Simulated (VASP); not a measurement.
# Pressure and energy of hexagonal Be against volume at fixed axis ratio, PBEsol

The pressure and the energy of hexagonal close-packed beryllium are calculated for a cell scaled evenly about its equilibrium volume. The two curves give the stiffness of the metal, which matters wherever beryllium serves as a light, rigid material, as in X-ray windows and mirror blanks. Volume changes are measured from the minimum of the fitted energy curve, energies from the lowest point of the series, and a positive pressure means a compressed cell. The problem has three parts: to obtain the bulk modulus from the pressures and check it against the energies, to explain why compression costs more than expansion, and to find the missing pressure at 7.55 Å³ per atom.

## Calculations

A cell from a diffraction database, relaxed at this level and then scaled evenly, fractional positions kept. VASP 6.6.1, plane waves with PAW, PBEsol, cutoff 400 eV, k mesh 13×13×8, no spin polarisation, no spin-orbit coupling, static lattice. A Birch-Murnaghan fit to the energies has its minimum at 7.87 Å³ per atom.

Notes on method and selection:

- The pressure is that of a finite plane-wave basis, so it need not vanish exactly at the minimum of the energy.
- Only series whose fit has its minimum inside the range and an error under 0.5 meV per atom are shown.
- Where rows or columns differ in functional or spin-orbit coupling, non-spherical gradient terms in the PAW spheres (LASPH) may be on in some and off in others.
- Runs that did not converge, have known faults or may not be shown are not listed, and runs on Ansatz's PAW sets soft_1 and soft_2 are kept to separate tables.

Columns:

- volume change (%): volume relative to the fitted equilibrium volume.
- pressure (GPa): pressure from the stress tensor (positive: compressed).
- energy (meV/atom): energy per atom above the lowest point of the series.

Input lines of one member:

```
PREC = Accurate
ENCUT = 400
EDIFF = 1E-06
NELM = 100
ISMEAR = 1
SIGMA = 0.2
LREAL = .FALSE.
ALGO = Normal
GGA = PS
NBANDS = 8
LORBIT = 11
KPAR = 2
ISIF = 2
```

Command (options for logging and memory left out): `mpirun -np 2 vasp_std`

## Numbers

```
member   volume change (%)  pressure (GPa)  energy (meV/atom)
7.39 Å³  −6.11              8.57            12.42
7.55 Å³  −4.11              ?               ?
7.71 Å³  −2.12              2.66            1.40
7.86 Å³  −0.12              0.06            0.00
8.02 Å³  1.88               −2.31           1.04
8.18 Å³  3.88               −4.50           4.32
8.33 Å³  5.87               −6.50           9.66
```

Cells marked ? are withheld until the estimate has been made.

pressure (GPa) against volume change (%), members shown:

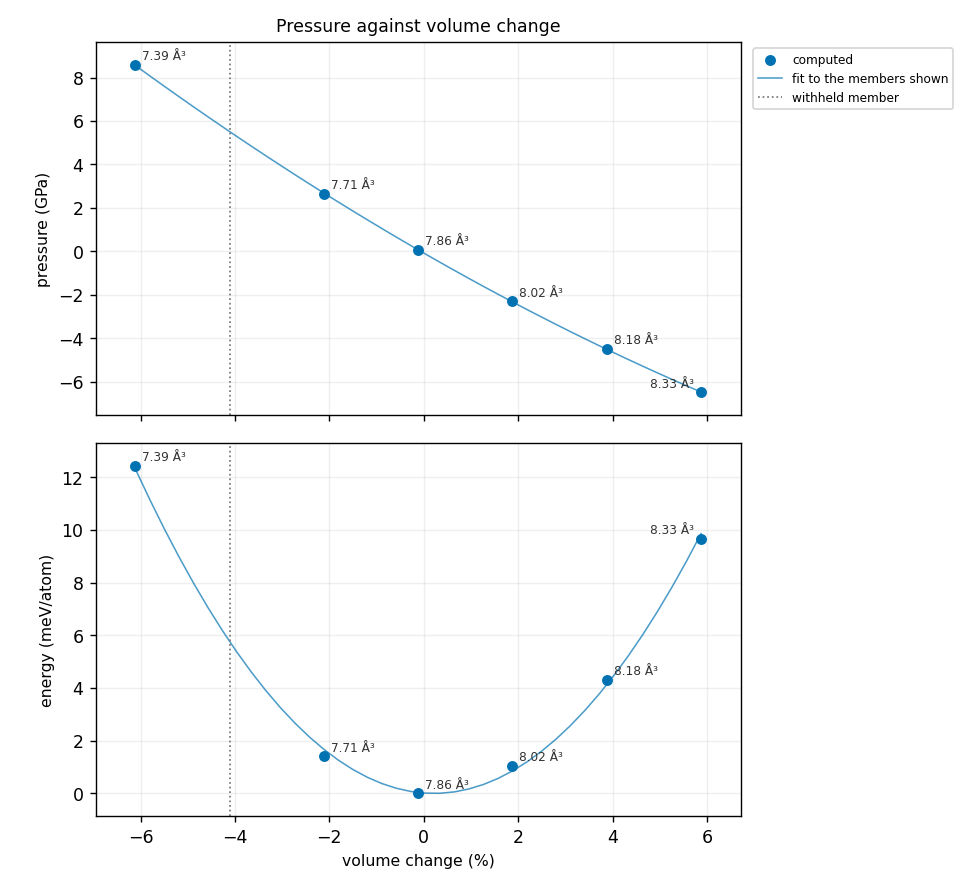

Least-squares fits to the members shown, with x = volume change (%); R² and errors in the fitted variable (y, or ln y where the fit is in ln y):

```
y                  members  fit                                  R²    rms residual  leave-one-out rms  the same for the mean of the others
pressure (GPa)     6        y = −0.08191 − 1.249 x + 0.02706 x²  1.00  0.020         0.087              6.0
energy (meV/atom)  6        y = 0.01018 − 0.1329 x + 0.3079 x²   1.00  0.18          0.81               5.6
```

## The trend and its physics

The pressure falls from each shown volume to the next larger one. Across the equilibrium the slope is (−2.31 − 2.66) / (1.88 + 2.12) = −1.24 GPa per percent, so that $B = -V\,dP/dV$ is about 100 × 1.24 = 124 GPa. The energies should then rise as $\tfrac12 B V_0 (\Delta V/V_0)^2$. With 1 eV/Å³ = 160.2 GPa this gives 0.5 × 124 × 7.87 / 160.2 = 3.05 eV per atom as the factor of $(\Delta V/V_0)^2$. With the volume change in percent the factor is 3.05 × 1000 / 10000 = 0.305 meV per atom. The quadratic coefficient fitted to the energies is 0.3079, in good agreement.

The slope is not constant. It is (2.66 − 8.57) / (−2.12 + 6.11) = −1.48 GPa per percent between the two smallest shown volumes and (−6.50 + 2.31) / (5.87 − 1.88) = −1.05 between 8.02 and 8.33 Å³. The energy shows the same asymmetry, with 12.42 meV at −6.11 % against 9.66 meV at 5.87 %. The slightly different distances explain only part of this: scaled quadratically to 6.11 %, the energy on expansion would be 9.66 × 6.11 × 6.11 / (5.87 × 5.87) = 10.47 meV.

A simple picture of an sp metal accounts for this. The kinetic energy of the valence electrons grows as $V^{-2/3}$ on compression, while the electrostatic attraction that binds them grows only as $V^{-1/3}$. Repulsion therefore gains on attraction as the cell shrinks, and the metal stiffens.

At zero volume change the fitted pressure is −0.08 GPa instead of zero. At a fixed cutoff a larger cell holds more plane waves, which lowers its energy slightly; the stress tensor omits this gain, so its pressure lies below $-dE/dV$ taken from the energy curve.

Because the axis ratio was held fixed, the modulus found here is an upper bound to that of a cell free to change shape. The stress is larger along the hexagonal axis, so a compressed cell free to change shape would raise its axis ratio and lower its energy.

## Predicting the missing value

Plain estimates from the members shown:

- 7.55 Å³, fit at x = −4.11: 5.51 GPa
- 7.55 Å³, straight-line interpolation between 7.39 Å³ and 7.71 Å³: w = (−4.11 − (−6.11)) / (−2.12 − (−6.11)) = 0.501, so 8.57 + 0.501 × (2.66 − 8.57) = 5.61 GPa

The straight-line estimate of 5.61 GPa must be too high, because the pressure curve is convex and a chord lies above it. The fitted curvature gives the excess as 0.02706 × (−4.11 + 6.11) × (−2.12 + 4.11) = 0.11 GPa. The quadratic fit, 5.51 GPa, includes the curvature but spreads its residuals over the whole range.

A local parabola through the three nearest shown volumes on this side, 7.39, 7.71 and 7.86 Å³, is preferred. The volumes are equally spaced within rounding, and for four such points on a parabola $P_1 = (P_0 + 3P_2 - P_3)/3$, where $P_1$ is the missing value. This gives (8.57 + 3 × 2.66 − 0.06) / 3 = 5.50 GPa.

The same formula can be tried on two shown members. For 7.86 Å³ it gives (2.66 − 3 × 2.31 + 4.50) / 3 = 0.08 GPa against 0.06, and for 8.02 Å³ it gives (0.06 − 3 × 4.50 + 6.50) / 3 = −2.31 GPa, as in the table. The root mean square of the two misses is about 0.01 GPa, which is taken as the error.

No further shift is called for. Symmetry fixes the atomic positions, so no internal relaxation can set this volume apart from its neighbours, and the finite-basis offset is already contained in the three pressures used.

**Committed estimate, 7.55 Å³: pressure = 5.50 ± 0.01 GPa.**

## Check

```
member   volume change (%)  pressure (GPa)  energy (meV/atom)
7.55 Å³  −4.11              5.48            5.46
```

```
member   estimate       pressure (GPa)  computed  estimate − computed  miss in error bars
7.55 Å³  committed      5.50            5.48      +0.02                2.0
7.55 Å³  fit            5.51            5.48      +0.03
7.55 Å³  interpolation  5.61            5.48      +0.13
```

pressure (GPa) against volume change (%):

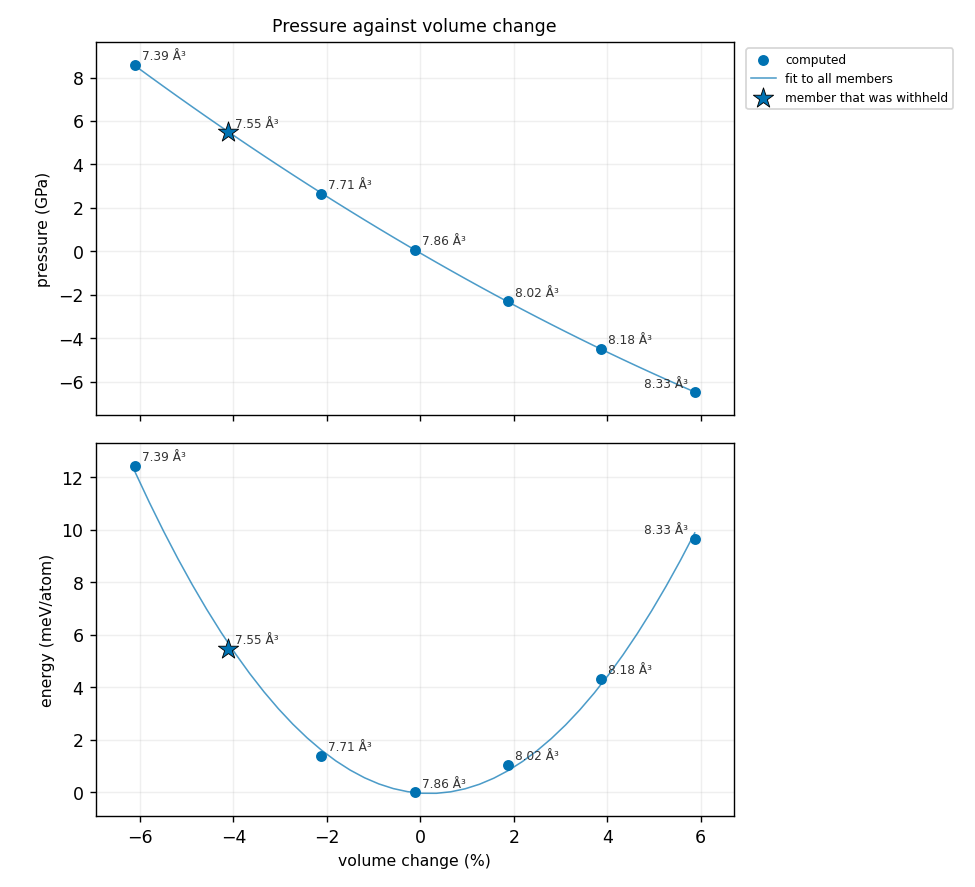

The computed pressure at 7.55 Å³ is 5.48 GPa. The estimate of 5.50 GPa is 0.02 GPa too high and lies outside its error bar, by a factor of two. It is still slightly closer than the quadratic fit (0.03 GPa too high) and much closer than the straight line (0.13 GPa too high).

The argument from convexity held: the chord was expected to overshoot by 0.11 GPa and did so by 5.61 − 5.48 = 0.13 GPa. The error bar failed. It rested on only two trials, one of which happened to agree to the last printed digit. A parabola also takes the curvature as constant, whereas the curvature of the pressure grows on compression. This makes the value inferred between 7.39 and 7.71 Å³ too high, which is the sign of the miss; rounding of the tabulated pressures can add a comparable amount. An error of 0.02 GPa would have been fairer.

## Members off the line

Least-squares fits to the whole series, with x = volume change (%); R² and errors in the fitted variable (y, or ln y where the fit is in ln y):

```
y                  members  fit                                  R²    rms residual  leave-one-out rms  the same for the mean of the others
pressure (GPa)     7        y = −0.08581 − 1.248 x + 0.02706 x²  1.00  0.020         0.053              5.9
energy (meV/atom)  7        y = −0.03110 − 0.1222 x + 0.3079 x²  1.00  0.19          0.51               5.0
```

Largest departures from the fit to the whole series:

```
member   pressure (GPa)  fit    computed − fit  in rms residuals
8.02 Å³  −2.31           −2.34  +0.03           1.3
7.71 Å³  2.66            2.68   −0.02           1.1
8.33 Å³  −6.50           −6.48  −0.02           1.0
8.18 Å³  −4.50           −4.52  +0.02           1.0
```

No volume stands out: the largest departure from the quadratic fit is +0.03 GPa, at 8.02 Å³, or 1.3 rms residuals. The signs nevertheless follow a pattern, with 7.71 and 8.33 Å³ below the fit and 8.02 and 8.18 Å³ above it. This is what a missing cubic term with a negative coefficient leaves behind, as expected for a metal whose pressure curve bends more strongly on compression.

## Summary

Between −6.11 and 5.87 % the pressure follows a quadratic in the volume change, with a leave-one-out error of 0.053 GPa against 5.9 GPa for the mean of the others. A volume inside this range can therefore be estimated to a few hundredths of a GPa.

The fit gives a bulk modulus of 100 × 1.248 = 124.8 GPa at fixed axis ratio. Its pressure derivative, $B' = V_0^2 P''/B - 1$, is 2 × 0.02706 × 100 / 1.248 − 1 = 3.34, so 1 GPa of pressure raises the modulus by about 3 GPa.

The main omission is zero-point motion, which is strong in so light an atom. With a rough energy of 0.09 eV per atom and a Grüneisen parameter near 1, it adds about 1 × 0.09 × 160 / 7.9 = 2 GPa of outward pressure. That is far more than the scatter about the fit, and would enlarge the equilibrium volume by one to two percent.

[Logs are printed without paths, hosts, clocks, repeated set-up lines and the standing remarks that a program may print on its own settings, such as how far it seeks lower states.]
